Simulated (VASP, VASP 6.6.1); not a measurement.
# Equilibrium volume of fcc rhodium: PBE with D3(BJ) dispersion comes within 1 % of experiment

## Experimental context

The reference is the zero-pressure volume of the conventional rhodium cell, 55.046 ± 0.016 Å³, from "Thermal equation of state of rhodium characterized by XRD in a resistively heated diamond anvil cell" (2024, PubMed Central 11535440). A grain of 99.9 % rhodium was compressed in helium at room temperature and followed by synchrotron X-ray diffraction, with gold as the pressure scale. The volume is a parameter of a Vinet equation of state fitted to the compression data, so it carries the choice of fit and pressure scale as well as the diffraction error. We suspect that it may lie marginally high for that reason. The published refinement from which our starting cell derives, with a = 3.803 Å, corresponds to a volume smaller by less than 0.1 %, a difference of no consequence here.

| compared with | measured | source's wording or label | T (K) | method |
| --- | --- | --- | --- | --- |
| volume of the conventional cell (Å³) | 55.046 ± 0.016 | V0 of conventional cell from Vinet EoS fit | room temperature | synchrotron XRD in DAC, EoS fit |

Conditions are those given with the value in the passage it was taken from; "not stated" means there, and the paper may say more elsewhere.

## Aim and plan

We want the cheapest level of theory that gives the volume of the conventional cell within 2 %. That is roughly 0.7 % in the lattice constant, close enough to separate functionals that bind a transition metal too strongly or too weakly from those that do not. A much narrower target would be blurred by what the model omits: the nuclei are static, and for a stiff metal like rhodium zero-point motion and thermal expansion up to room temperature together add roughly 0.5 to 1 % to the volume. A faultless static calculation should therefore come out slightly below the measured value.

The model is one atom in the primitive fcc cell, without spin polarisation, since rhodium is a Pauli paramagnet. The measured cell is stretched by 3 % in volume before relaxation, so that the result has to be found rather than inherited. We begin with the local density approximation and move to gradient corrections if the volume calls for them, then test k mesh and plane-wave cutoff before judging. With one atom in the cell all semilocal levels are cheap, and the choice to be made is mainly that of the functional.

System: Rh, space group Fm-3m (Rhodium); Fm-3m (No. 225), 1 atom in the cell; conventional a = 3.803 A, from a published structure refinement (COD).

On the selection of runs and values: 1 further cited values are not listed: repeats, values quoted from earlier work, more than five for one quantity or six quantities, optical onsets of an indirect gap, modes that a denser mesh moves by over 3 %, or quantities that fewer than three runs give.

## 1. The local density approximation

LDA is the simplest functional and sets the baseline. It usually overbinds metals, so we expect a volume that is too small by more than the missing thermal and zero-point expansion can explain. We use a 20×20×20 mesh from the start, because a metal with a partly filled d band has a Fermi surface that needs dense sampling, and one atom makes this affordable.

**Run 1.** VASP 6.6.1: LDA; 450 eV, 20x20x20 k mesh; cell and atoms relaxed, relaxed twice, LASPH on.

Key lines of the input:
```
ALGO = Normal
EDIFF = 1E-06
EDIFFG = -0.006
ENCUT = 450
GGA = CA
IBRION = 2
ISIF = 3
ISMEAR = 1
LASPH = .TRUE.
NBANDS = 13
NELM = 100
NSW = 50
PREC = Accurate
SIGMA = 0.15
KPOINTS: Gamma, 20 20 20
PAW data sets: Rh_pv (LDA 64)
```

Command:
```
mpirun -np 8 vasp_std
```

Selected lines of the output:
```
   3 F= -.86849886E+01 E0= -.86852789E+01  d E =-.535968E-01
   4 F= -.86852001E+01 E0= -.86854864E+01  d E =-.538084E-01
   5 F= -.86852056E+01 E0= -.86854902E+01  d E =-.538138E-01
   6 F= -.86852080E+01 E0= -.86854936E+01  d E =-.242036E-05
[second pass]
   3 F= -.86842196E+01 E0= -.86845042E+01  d E =-.867626E-05
 reached required accuracy - stopping structural energy minimisation
  external PRESSURE =       0.1492932 kB  Pullay stress =       0.0000000 kB
  volume of cell :       13.25
      direct lattice vectors                 reciprocal lattice vectors
     0.000000000  1.878207254  1.878207254    -0.266211303  0.266211303  0.266211303
     1.878207254 -0.000000000  1.878207254     0.266211303 -0.266211303  0.266211303
     1.878207254  1.878207254 -0.000000000     0.266211303  0.266211303 -0.266211303
```

Converged; 20 s on 8 cores of Intel Xeon 6975P-C (Granite Rapids), shared host (all steps together).

| quantity | run 1 | measured | deviation |
| --- | --- | --- | --- |
| volume of the conventional cell (Å³) | 53.005 | 55.046 ± 0.016 | −2.041 (−3.7 %) |
| lattice constant a of the conventional cell (Å) | 3.756 |  |  |
| space group at the end | Fm-3m |  |  |
| pressure left at the end (GPa) | 0.0149 |  |  |

LDA gives 53.005 Å³, 3.7 % below the measured volume and outside the target. The missing thermal and zero-point expansion has the right sign but accounts for at most about a quarter of the gap. The rest fits the usual overbinding of LDA in transition metals. The second relaxation, started with a basis rebuilt for the new cell, ended with a negligible pressure, so an unfinished relaxation is not the reason.

## 2. Two gradient-corrected functionals

The next step up is a dependence on the density gradient, which for one atom costs little more than LDA. We take two forms of it at the same cutoff and mesh. PBE is the general-purpose choice and tends to make the heavier transition metals somewhat too large. PBEsol has a weaker gradient correction to exchange, designed for equilibrium volumes of solids, and should fall between LDA and PBE. We expect PBE above the measured volume and PBEsol slightly below it, where a static calculation belongs.

**Run 2.** VASP 6.6.1: PBE; 450 eV, 20x20x20 k mesh; cell and atoms relaxed, LASPH on.

Key lines of the input, as changed from run 1:
```diff
- GGA = CA
+ GGA = PE
- PAW data sets: Rh_pv (LDA 64)
+ PAW data sets: Rh_pv (PBE 64)
```

Selected lines of the output:
```
  volume of cell :       14.04
```

Converged; 10 s of wall time (all steps together).

**Run 3.** VASP 6.6.1: PBEsol; 450 eV, 20x20x20 k mesh; cell and atoms relaxed, relaxed twice, LASPH on.

Key lines of the input, as changed from run 2:
```diff
- GGA = PE
+ GGA = PS
```

Selected lines of the output:
```
  external PRESSURE =       0.1568197 kB  Pullay stress =       0.0000000 kB
  volume of cell :       13.49
```

Converged; 21 s of wall time (all steps together).

| quantity | run 2 | run 3 | measured |
| --- | --- | --- | --- |
| volume of the conventional cell (Å³) | 56.143 | 53.959 | 55.046 ± 0.016 |
| lattice constant a of the conventional cell (Å) | 3.829 | 3.779 |  |
| space group at the end | Fm-3m | Fm-3m |  |
| pressure left at the end (GPa) | −0.0107 | 0.0157 |  |

The two gradient corrections bracket the measured volume almost symmetrically, PBE 1.097 Å³ above it and PBEsol 1.087 Å³ below. Both lie within 2 %, but by less than the quoted experimental uncertainty of 0.016 Å³. With the volume of the published refinement as reference, PBE would fall just outside. We therefore call both undecided for now.

The physics does separate them. Zero-point motion and thermal expansion would enlarge both computed cells, which brings PBEsol closer to experiment and takes PBE further away. PBEsol is thus the better candidate, although the missing expansion covers only about a quarter to a half of its shortfall.

## 3. Mesh and cutoff for PBEsol

With so thin a margin, a small numerical error could decide the result. We repeat the PBEsol relaxation once with a 28×28×28 mesh and once with a cutoff of 600 eV, changing one setting at a time. Both runs remain cheap for a single atom. We expect shifts well below one per cent, but even a few hundredths of a cubic ångström would matter for the comparison with the limit.

**Run 4.** VASP 6.6.1: PBEsol; 450 eV, 28x28x28 k mesh; cell and atoms relaxed, relaxed twice, LASPH on.

Key lines of the input, as changed from run 3:
```diff
- KPOINTS: Gamma, 20 20 20
+ KPOINTS: Gamma, 28 28 28
```

Selected lines of the output:
```
   1 F= -.81105806E+01 E0= -.81105082E+01  d E =-.811058E+01
   2 F= -.79360527E+01 E0= -.79359302E+01  d E =0.174528E+00
   3 F= -.81384570E+01 E0= -.81383588E+01  d E =-.278764E-01
   4 F= -.81385069E+01 E0= -.81384079E+01  d E =-.279263E-01
[second pass]
   3 F= -.81377826E+01 E0= -.81376834E+01  d E =-.444759E-05
 reached required accuracy - stopping structural energy minimisation
  external PRESSURE =       0.1817814 kB  Pullay stress =       0.0000000 kB
  volume of cell :       13.49
      direct lattice vectors                 reciprocal lattice vectors
     0.000000000  1.889411156  1.889411156    -0.264632713  0.264632713  0.264632713
     1.889411156 -0.000000000  1.889411156     0.264632713 -0.264632713  0.264632713
     1.889411156  1.889411156  0.000000000     0.264632713  0.264632713 -0.264632713
```

Converged; 40 s of wall time (all steps together).

**Run 5.** VASP 6.6.1: PBEsol; 600 eV, 20x20x20 k mesh; cell and atoms relaxed, relaxed twice, LASPH on.

Key lines of the input, as changed from run 3:
```diff
- ENCUT = 450
+ ENCUT = 600
```

Selected lines of the output:
```
  external PRESSURE =       0.6995789 kB  Pullay stress =       0.0000000 kB
  volume of cell :       13.49
```

Converged; 25 s of wall time (all steps together).

| quantity | run 4 | run 5 | measured |
| --- | --- | --- | --- |
| volume of the conventional cell (Å³) | 53.960 | 53.960 | 55.046 ± 0.016 |
| lattice constant a of the conventional cell (Å) | 3.779 | 3.779 |  |
| space group at the end | Fm-3m | Fm-3m |  |
| pressure left at the end (GPa) | 0.0182 | 0.0700 |  |

Neither the denser mesh nor the higher cutoff moves the PBEsol volume by more than 0.001 Å³. That agreement is finer than the relaxations warrant: the 0.07 GPa left at 600 eV corresponds, in a metal as stiff as rhodium, to roughly 0.01 Å³. Sampling and basis therefore do not explain the shortfall of about 2 %. They do not settle the comparison with the limit either, because the margin is as small as the experimental uncertainty and the stopping threshold of the relaxation. PBEsol remains undecided.

## 4. Between PBEsol and PBE

A clear result needs a volume between those of PBEsol and PBE, and we try three routes to it. The cheapest is to add the pairwise D3(BJ) dispersion correction to PBE. It must contract the cell, but it takes little account of the screening by conduction electrons and may contract it too far. The second, optB86b-vdW, obtains dispersion from the density itself through a nonlocal correlation term. The third, r2SCAN, leaves long-range dispersion out and adds the kinetic-energy density to the semilocal description. All three keep the 450 eV and the 20×20×20 mesh that proved sufficient for PBEsol, though that check does not strictly carry over to them. We expect all three to come out below PBE, and have no firm expectation of their order.

**Run 6.** VASP 6.6.1: PBE + D3(BJ); 450 eV, 20x20x20 k mesh; cell and atoms relaxed, relaxed twice, LASPH on.

Key lines of the input, as changed from run 2:
```diff
+ IVDW = 12
```

Selected lines of the output:
```
  volume of cell :       13.64
```

Converged; 17 s of wall time (all steps together).

**Run 7.** VASP 6.6.1: optB86b-vdW; 450 eV, 20x20x20 k mesh; cell and atoms relaxed, relaxed twice, LASPH on.

Key lines of the input, as changed from run 2:
```diff
+ AGGAC = 0
- GGA = PE
+ GGA = MK
+ LUSE_VDW = .TRUE.
+ PARAM1 = 0.1234
+ PARAM2 = 1
```

Selected lines of the output:
```
  external PRESSURE =      -0.5176443 kB  Pullay stress =       0.0000000 kB
  volume of cell :       13.75
```

Converged; 55 s of wall time (all steps together).

**Run 8.** VASP 6.6.1: r2SCAN; 450 eV, 20x20x20 k mesh; cell and atoms relaxed, relaxed twice, LASPH on.

Key lines of the input, as changed from run 2:
```diff
- GGA = PE
+ METAGGA = R2SCAN
```

Selected lines of the output:
```
  external PRESSURE =      -0.6818187 kB  Pullay stress =       0.0000000 kB
  volume of cell :       13.77
```

Converged; 63 s of wall time (all steps together).

| quantity | run 6 | run 7 | run 8 | measured |
| --- | --- | --- | --- | --- |
| volume of the conventional cell (Å³) | 54.549 | 55.009 | 55.068 | 55.046 ± 0.016 |
| lattice constant a of the conventional cell (Å) | 3.793 | 3.803 | 3.805 |  |
| space group at the end | Fm-3m | Fm-3m | Fm-3m |  |
| pressure left at the end (GPa) | −0.0052 | −0.0518 | −0.0682 |  |

All three volumes lie between those of PBEsol and PBE and well within the target. PBE + D3(BJ) gives 54.549 Å³, 0.9 % below the measured value. The dispersion term contracts the PBE cell by 1.594 Å³, and our concern that it might contract it too far is not borne out. The remaining deficit is about what zero-point motion and thermal expansion should add. This doesn't show that a pairwise correction describes dispersion in a metal properly, since it may also be making up for other errors of PBE.

optB86b-vdW and r2SCAN come within 0.1 % of the measured volume, one just below and one just above. The small pressures left in these two runs have the same sign and correspond to roughly 0.01 Å³ each, too little to change their order. Their closeness to experiment is no sign of higher accuracy than PBE + D3(BJ), however: with the missing expansion added, both would end up slightly too large, by up to about 1 %, and still within the target.

PBE + D3(BJ) is the cheapest of the three by construction, because the pairwise term adds almost nothing to a PBE step. Its mesh and cutoff were not tested separately. Its distance from the lower limit is more than half a cubic ångström, however, whereas the same changes of setting moved the PBEsol volume by only about 0.001 Å³.

## Overview

| run | settings | volume of the conventional cell (Å³) | deviation | cost |
| --- | --- | --- | --- | --- |
| 1 | LDA, 450 eV, 20x20x20 k mesh, relaxed twice | 53.005 | −2.041 (−3.7 %) | 2.7 core-min |
| 2 | PBE, 450 eV, 20x20x20 k mesh | 56.143 | +1.097 (+2.0 %) | 83 core-s |
| 3 | PBEsol, 450 eV, 20x20x20 k mesh, relaxed twice | 53.959 | −1.087 (−2.0 %) | 2.8 core-min |
| 4 | PBEsol, 450 eV, 28x28x28 k mesh, relaxed twice | 53.960 | −1.086 (−2.0 %) | 5.4 core-min |
| 5 | PBEsol, 600 eV, 20x20x20 k mesh, relaxed twice | 53.960 | −1.086 (−2.0 %) | 3.4 core-min |
| 6 | PBE + D3(BJ), 450 eV, 20x20x20 k mesh, relaxed twice | 54.549 | −0.497 (−0.9 %) | 2.3 core-min |
| 7 | optB86b-vdW, 450 eV, 20x20x20 k mesh, relaxed twice | 55.009 | −0.037 (−0.1 %) | 7.3 core-min |
| 8 | r2SCAN, 450 eV, 20x20x20 k mesh, relaxed twice | 55.068 | +0.022 (+0.0 %) | 8.5 core-min |
|  | measured | 55.046 ± 0.016 |  |  |

The runs in order, against the measurement:

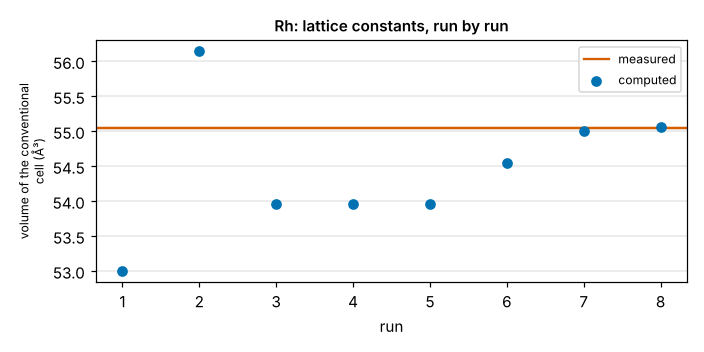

## Assessment

PBE + D3(BJ) meets the target: its volume of 54.549 Å³ lies 0.9 % below the measured 55.046 Å³, at a cost of 2.3 core-minutes. It is the cheapest level tried that passes clearly. LDA misses at −3.7 %, while PBE and PBEsol sit so close to opposite edges of the 2 % window that we leave both undecided.

The missing zero-point and thermal expansion, roughly 0.5 to 1 % in volume, accounts for the sign and about the size of what remains with PBE + D3(BJ). Added to the other results, it would bring PBEsol clearly inside the target and push PBE out of it. It would also leave optB86b-vdW and r2SCAN slightly too large, so their agreement within 0.1 % rests partly on comparing a static cell with a room-temperature one.

The good volume from PBE + D3(BJ) does not establish that its physics is right. PBE alone gives too large a cell, and the pairwise attraction shrinks it by about the amount needed. How much of that is real dispersion, and how much makes up for errors of PBE at short range, these runs cannot separate.

The step that mattered was going beyond the plain gradient corrections. The mesh and cutoff tests left PBEsol undecided, but they showed that neither setting is the cause of its shortfall. They were made for PBEsol only; for PBE + D3(BJ) we rely on the wide margin. The reference is itself a fitted volume and may be marginally high, but the published refinement differs from it by less than 0.1 %, which does not affect the result for PBE + D3(BJ).

[Logs are printed without paths, hosts, clocks, repeated set-up lines and the standing remarks that a program may print on its own settings, such as how far it seeks lower states.]

[The runs shown are a pick from a larger set of finished runs; failed, doubtful and other runs were left out of it ahead of writing. So were measured values far from every level or from commonly accepted values, and agreement can look better than it is. Lines of input and output are excerpts and may be shortened.]
